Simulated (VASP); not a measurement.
# Relaxed volume of layered phosphorus (Cmce, 4 atoms) with LDA, PBEsol, PBEsol+D3(BJ), PBE and r2SCAN in VASP, and the cost per iteration

A transistor channel cut from layered phosphorus has a band gap that depends on how closely the layers sit and how strongly each layer is puckered, so a calculation that starts from a wrong cell carries the error into the gap. I therefore need to know how the common functionals rank on the volume of this crystal, and what each one costs. In every row the cell and the atoms are relaxed at zero pressure within the space group Cmce. The volume error is taken against the cited measured cell, and a negative sign means that the computed cell is too small. The cost is processor time per electronic iteration.

## Computational details

One crystal, P (Cmce, 4 atoms) (known phase); cell and atoms relaxed at zero pressure inside the space group at each level, from a database cell or a slightly enlarged copy of it; errors are taken against the cited cell (a = 3.3164 Å, b = 10.4840 Å, c = 4.3793 Å). Program: VASP 6.6.1, plane waves and PAW (data sets made for LDA of release 64 or PBE of release 64), scalar-relativistic without spin-orbit coupling, no spin polarisation. Occupations: Gaussian smearing of 0.05 eV. Aspherical gradient corrections in the PAW spheres (LASPH) are on in some runs and off in others. Times are rough, from shared x86 server processors. The same in all rows: cutoff and k mesh: 450 eV, k 10×10×8.

Notes on method and selection:

- The relaxed cell is that of the static lattice at zero pressure; zero-point and thermal expansion are in the measured edges, from a tenth of a percent to about one percent (most for halides, soft solids and crystals of the lightest elements such as H, Li, Be and B; not calculated here), so a level that hits the measured value may do so by cancelling errors.
- The relaxation keeps the space group of the starting structure, unless a run's flaw says otherwise, so it can't find a distortion to lower symmetry.
- VASP relaxes on the plane waves of its starting cell; rows come from the last relaxation, in which the volume moved by 1 % or less.
- D3(BJ) is an atom-based dispersion correction added to the functional.
- Older structure determinations can be of non-stoichiometric or impure samples, and a database entry may not state temperature or pressure; a miss of several percent to the same side at every level points at the entry or the magnetic state more than at the functional.
- The Kohn-Sham gap is open in some rows and closed in others.
- Where a crystal was run more than once at a level, the run on the densest mesh (metals) or with the highest cutoff is shown; cells that lost their symmetry or did not come to rest are left out.
- Where a cited cell is compared, it is used only if the database entry bears it out to 0.6 % or a second determination confirms it.
- A table whose volumes refer to PBE has no confirmed cited cell, or one whose c/a every level misses to one side by over 1.2 %.
- Non-spherical gradient terms in the PAW spheres (LASPH) were as a rule on for AM05, RPBE, BLYP, D4 and meta-GGAs and in later sessions, and off for LDA, PBE, PBEsol and D3; where rows differ in this, it bears on volumes, moments and cost.
- Runs that did not converge, have known faults or may not be shown are not listed, and runs on Ansatz's PAW sets soft_1 and soft_2 are kept to separate tables.

Columns:

- volume error (%): relaxed volume over the measured volume (from the cited cell edges), minus one.
- volume (Å³): relaxed volume per atom.
- a (Å): lattice constant a of the conventional cell.
- c (Å): lattice constant c of the conventional cell.
- cost per iteration (core-s): processor time per electronic iteration, mean over the relaxation, shared machines, rough.

Input lines of one member:

```
PREC = Accurate
ENCUT = 450
EDIFF = 1E-07
NELM = 100
ISMEAR = 0
SIGMA = 0.05
LREAL = .FALSE.
ALGO = Normal
GGA = PE
NBANDS = 16
LORBIT = 11
IBRION = 2
NSW = 50
ISIF = 3
EDIFFG = -0.002
```

Command (options for logging and memory left out): `vasp_std`

## Numbers

| member | volume error (%) | volume (Å³) | a (Å) | c (Å) | cost per iteration (core-s) | remark |
| --- | --- | --- | --- | --- | --- | --- |
| LDA | −8.85 | 17.349 | 3.3051 | 4.1301 | 19 | LASPH off |
| PBEsol+D3(BJ) | −16.39 | 15.913 | 3.3411 | 3.8537 | 22 | LASPH off |
| PBE | 11.95 | 21.308 | 3.3058 | 4.5624 | 14 | LASPH off |
| r2SCAN | 8.27 | 20.608 | 3.2927 | 4.5516 | 100 | LASPH on |
| PBEsol | ? | ? | ? | ? | 17 |  |

Cells marked ? are withheld until the estimate has been made.

volume error (%) by member, members shown:

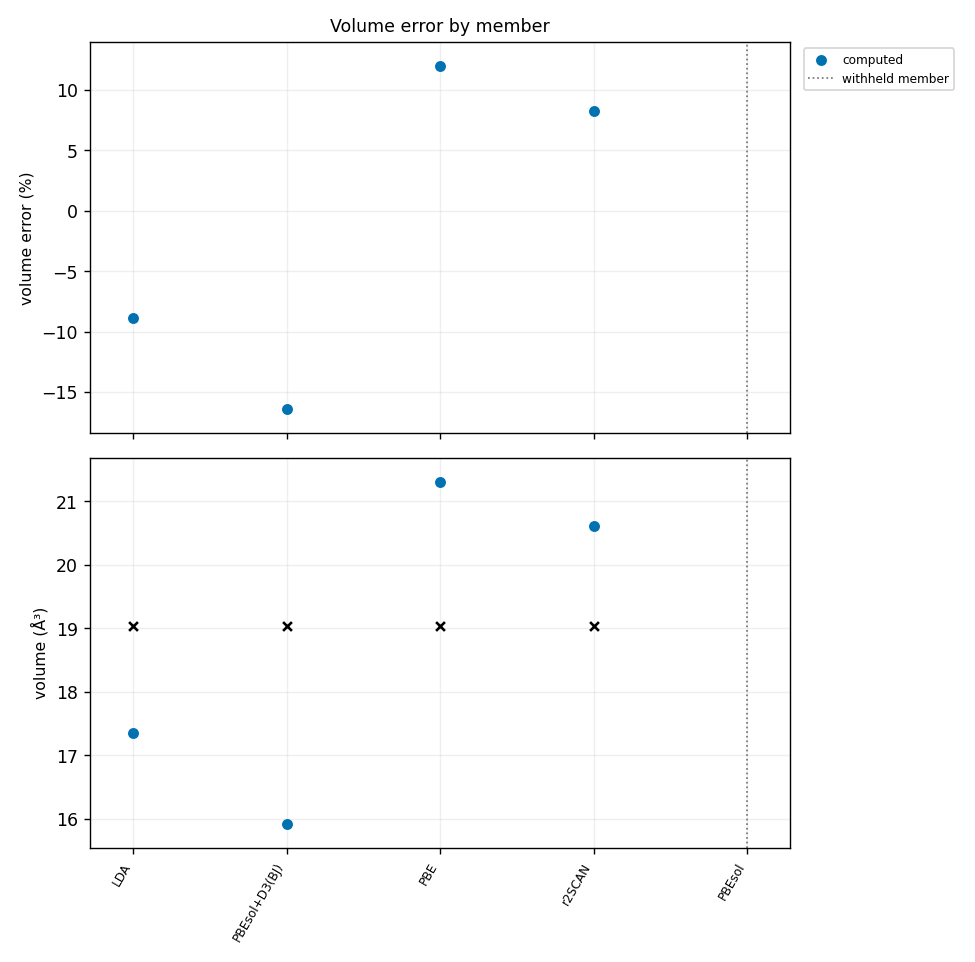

## What drives the series

From the smallest volume to the largest, the order is PBEsol+D3(BJ), LDA, r2SCAN, PBE. The first two lie below the measured volume and the last two above it, and the whole spread is 11.95 + 16.39 = 28.34 percentage points.

Very little of this comes from the edge a, which runs along the zigzag chains of covalent bonds. From LDA to PBE it grows by only 0.0007 Å, while c, which runs across the puckers, grows by a factor of 4.5624 / 4.1301 = 1.105, or 10.5 %. The conventional cell holds 8 atoms, so the stacking edge follows from b = 8V/(ac). With LDA it is 8 × 17.349 / (3.3051 × 4.1301) = 10.17 Å and with PBE 8 × 21.308 / (3.3058 × 4.5624) = 11.30 Å, a growth of about 11 %.

The soft directions thus take up the difference. Changing c mostly turns bond angles, and changing b works against the weak forces between layers. LDA binds overlapping layers too strongly for want of gradient terms. PBE favours regions of large density gradient, which weakens that attraction, and it has no long-range dispersion to replace it. r2SCAN recovers some attraction at medium range, which fits its place 11.95 − 8.27 = 3.68 points below PBE. LASPH also differs between these two rows, but I expect that to matter by a few tenths of a percent at most.

With PBEsol+D3(BJ) the ratio c/a falls to 3.8537 / 3.3411 = 1.153, against 4.3793 / 3.3164 = 1.320 in the measured cell. The puckers have folded more tightly along c, in the direction that pressure drives this crystal.

An r2SCAN iteration takes 100 / 14 = 7 times as long as a PBE one. The other costs lie too close together to rank on shared machines.

## An estimate before looking

Plain estimates from the members shown:

- PBEsol, mean of the 4 members shown: −1.26 %, standard deviation 12

The mean of the four members, −1.26 %, has a scatter of 12 points and includes a dispersion-corrected row, so I don't rely on it. PBEsol without D3 should lie above −16.39 %, because D3 adds attraction.

I place PBEsol between LDA and PBE by its exchange gradient coefficient, roughly 0.12 against 0.22 in PBE and zero in LDA, a fraction of 0.12 / 0.22 = 0.55. I treat the gradient terms as a constant outward pressure on the LDA crystal. Since the crystal softens as it expands, I use the Murnaghan form, in which pressure is proportional to $1 - x^{-n}$, with $x = V/V_{\mathrm{LDA}}$ and $n$ roughly 8 for a layered solid.

For PBE, x = 21.308 / 17.349 = 1.228 and 1 − 1.228^(−8) = 0.807. For PBEsol this becomes 0.55 × 0.807 = 0.444, so x = (1 − 0.444)^(−1/8) = 1.076. The error is then (1 − 0.0885) × 1.076 − 1 = −0.019, or −1.9 %. No shown member lies on this path to test it.

Gradient correlation lowers the fraction and the saturation of exchange at large gradients raises it. An assumed allowance of 0.15 either way moves the result by about 2.7 points. A straight line would give +2.6 %, and I take half its distance from my value, about 2.2 points, as the uncertainty of the curvature. Together these give √(2.7² + 2.2²) = 3.5 points.

**Committed estimate, PBEsol: volume error = −1.9 ± 3.5 %.**

## How the estimate fared

| member | volume error (%) | volume (Å³) | a (Å) | c (Å) | cost per iteration (core-s) | remark |
| --- | --- | --- | --- | --- | --- | --- |
| PBEsol | −5.61 | 17.966 | 3.3155 | 4.2067 | 17 | LASPH off |

| member | estimate | volume error (%) | computed | estimate − computed | miss in error bars |
| --- | --- | --- | --- | --- | --- |
| PBEsol | committed | −1.90 | −5.61 | +3.71 | 1.1 |
| PBEsol | mean | −1.26 | −5.61 | +4.36 |  |

volume error (%) by member:

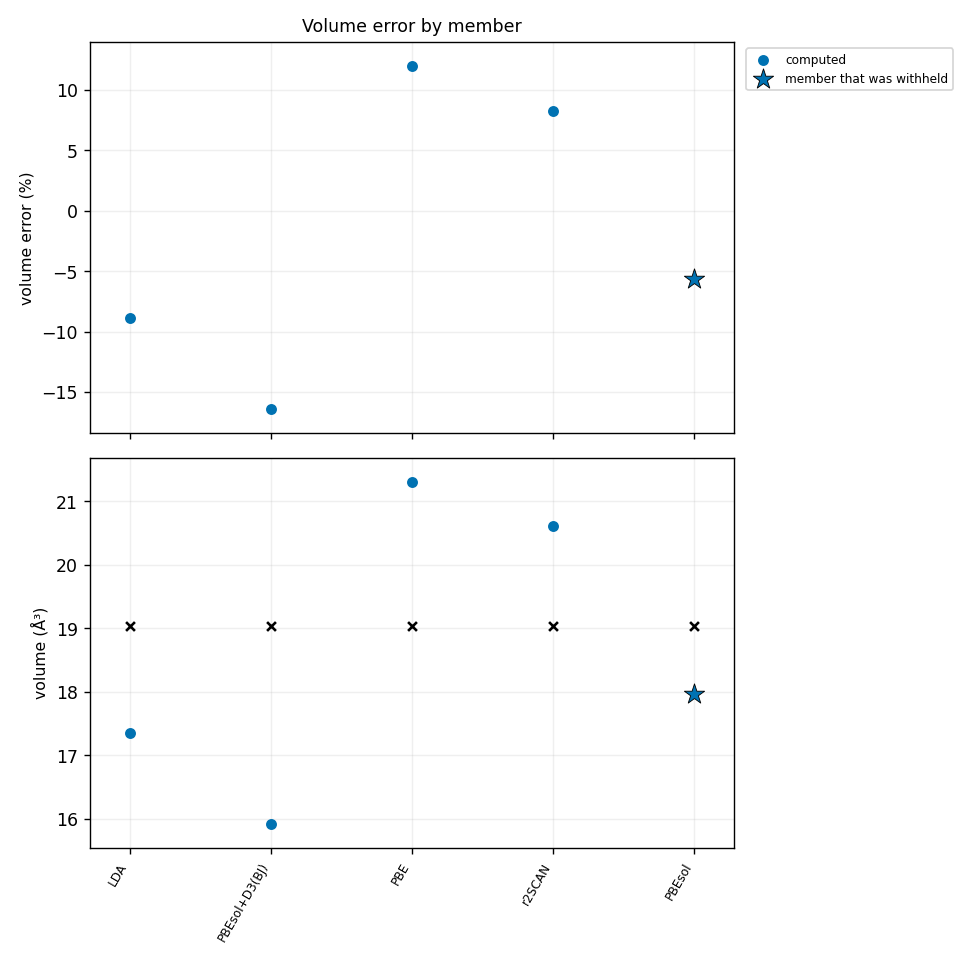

The computed PBEsol error is −5.61 %, so my estimate of −1.9 ± 3.5 % was 3.71 points too high and falls just outside its error bar. It beat the plain mean by only 0.65 points.

The order held: PBEsol lies above PBEsol+D3(BJ) and between LDA and PBE. The curved form also did better than a straight line with the same fraction, which would have missed by about 8 points.

One volume can't tell a wrong fraction from a wrong curvature, but if the curvature is kept, the fraction of 0.55 was too large. Put back into my formula, the computed volume gives x = 17.966 / 17.349 = 1.036 and 1 − x⁻⁸ = 0.24, hence a fraction of 0.24 / 0.807 = 0.30. A likely reason is that I had scaled by exchange alone, whereas the gradient part of correlation pulls the crystal together and offsets a larger share of the exchange term in PBEsol than in PBE. The gap may matter as well. It is closed with LDA and PBEsol and open with PBE, and overlapping bands favour a compact cell, so one smooth curve through both states was a bold assumption.

## Departures from the trend

The five errors average (−8.85 − 16.39 + 11.95 + 8.27 − 5.61) / 5 = −2.13 %, with a standard deviation of about 11 points. The two farthest members lie almost equally far out on opposite sides, PBEsol+D3(BJ) 16.39 − 2.13 = 14.26 points below the average and PBE 11.95 + 2.13 = 14.08 above it.

PBEsol+D3(BJ) is the more instructive. Adding D3 to PBEsol takes the volume from 17.966 to 15.913 Å³ per atom, a loss of 11.4 %, and shortens c by 0.353 Å while a grows slightly. That is more than a closing of the gaps between layers, because the puckers fold more tightly too. PBEsol already gives too small a cell, and the correction adds attraction to a crystal that is soft in just these directions. Its coefficients are also made for atoms and don't see the screening in a metallic crystal, which would exaggerate the attraction.

PBE errs the other way, most likely because it lacks attraction between the layers. The comparison with r2SCAN fits this: c differs by only 4.5624 − 4.5516 = 0.0108 Å, while b is 11.30 Å with PBE and 8 × 20.608 / (3.2927 × 4.5516) = 11.00 Å with r2SCAN. Most of the difference in volume therefore lies in the stacking direction, where medium-range attraction acts.

## Measured against computed

| member | quantity | measured | computed | computed − measured | conditions | source |
| --- | --- | --- | --- | --- | --- | --- |
| LDA | volume (Å³) | 19.0331 | 17.349 | −1.684 (−8.8 %) | 293 K; diffraction; structure determination listed in the Crystallography Open Database | [1] |
| PBEsol+D3(BJ) | volume (Å³) | 19.0331 | 15.913 | −3.120 (−16.4 %) | 293 K; diffraction; structure determination listed in the Crystallography Open Database | [1] |
| PBE | volume (Å³) | 19.0331 | 21.308 | +2.275 (+12.0 %) | 293 K; diffraction; structure determination listed in the Crystallography Open Database | [1] |
| r2SCAN | volume (Å³) | 19.0331 | 20.608 | +1.575 (+8.3 %) | 293 K; diffraction; structure determination listed in the Crystallography Open Database | [1] |
| PBEsol | volume (Å³) | 19.0331 | 17.966 | −1.067 (−5.6 %) | 293 K; diffraction; structure determination listed in the Crystallography Open Database | [1] |

Computed − measured (first source of each member):

- volume (Å³): mean error −0.404, mean absolute error 1.944 (10.2 %) over 5 members

Sources:

[1] (doi:10.1021/ic062192q, 2007)

By size of error the functionals rank PBEsol (−5.6 %), r2SCAN (+8.3 %), LDA (−8.8 %), PBE (+12.0 %) and PBEsol+D3(BJ) (−16.4 %). PBEsol is the best and PBEsol+D3(BJ) the worst.

The measured cell is from diffraction at 293 K and the computed ones are static. Taking thermal and zero-point expansion out of the measured volume would make the negative errors smaller and the positive ones larger, by roughly one point. r2SCAN and LDA are only 0.58 points apart in size, so their order is open. The errors fall on both sides of zero, which gives me no reason to doubt the measured cell.

The edge a is within 0.8 % of experiment at every level. The edge c ranges from −12.0 % with PBEsol+D3(BJ) to +4.2 % with PBE, so the covalent chains are described well and the puckering is not.

First place for PBEsol probably rests on a cancellation. Its cell is too small although it has no long-range dispersion, so it must bind too strongly in other ways, and the missing dispersion offsets part of that. Its gap is also closed, although the real crystal is a semiconductor.

## Time and accuracy

LDA, PBE, PBEsol and PBEsol+D3(BJ) take 14 to 22 core-seconds per iteration, which on shared machines counts as one price. The choice among these four should rest on the physics.

r2SCAN costs 100 / 17 = 5.9 times as much per iteration as PBEsol. Part of that goes into the kinetic-energy density and the LASPH terms. For this money the volume error is 8.27 %, larger in size than the 5.61 % of PBEsol, but the gap stays open. Against PBE, which also keeps the gap open, r2SCAN takes 3.68 points off the volume error.

## What to take away

For this crystal the choice of functional moves the volume by 28 points, nearly all of it through b and c. A further functional can't be placed closely from these rows: their scatter is about 11 points, and my interpolation between LDA and PBE missed by 3.7.

For device work the layer spacing b/2 is the handier number. It is 4 × 17.966 / (3.3155 × 4.2067) = 5.15 Å with PBEsol, 11.00 / 2 = 5.50 Å with r2SCAN and 11.30 / 2 = 5.65 Å with PBE, against 10.4840 / 2 = 5.24 Å measured. A gap computed on any of these relaxed cells inherits that error, so I would compute it on the measured cell, and with a hybrid functional or GW, because semilocal functionals make gaps too small even in the right cell.

A dispersion correction is no small refinement here: adding D3 to PBEsol moves the volume error down by 16.39 − 5.61 = 10.78 points, away from experiment. Added to PBE it would act in the right direction, by an amount not shown in the table.

[Logs are printed without paths, hosts, clocks, repeated set-up lines and the standing remarks that a program may print on its own settings, such as how far it seeks lower states.]
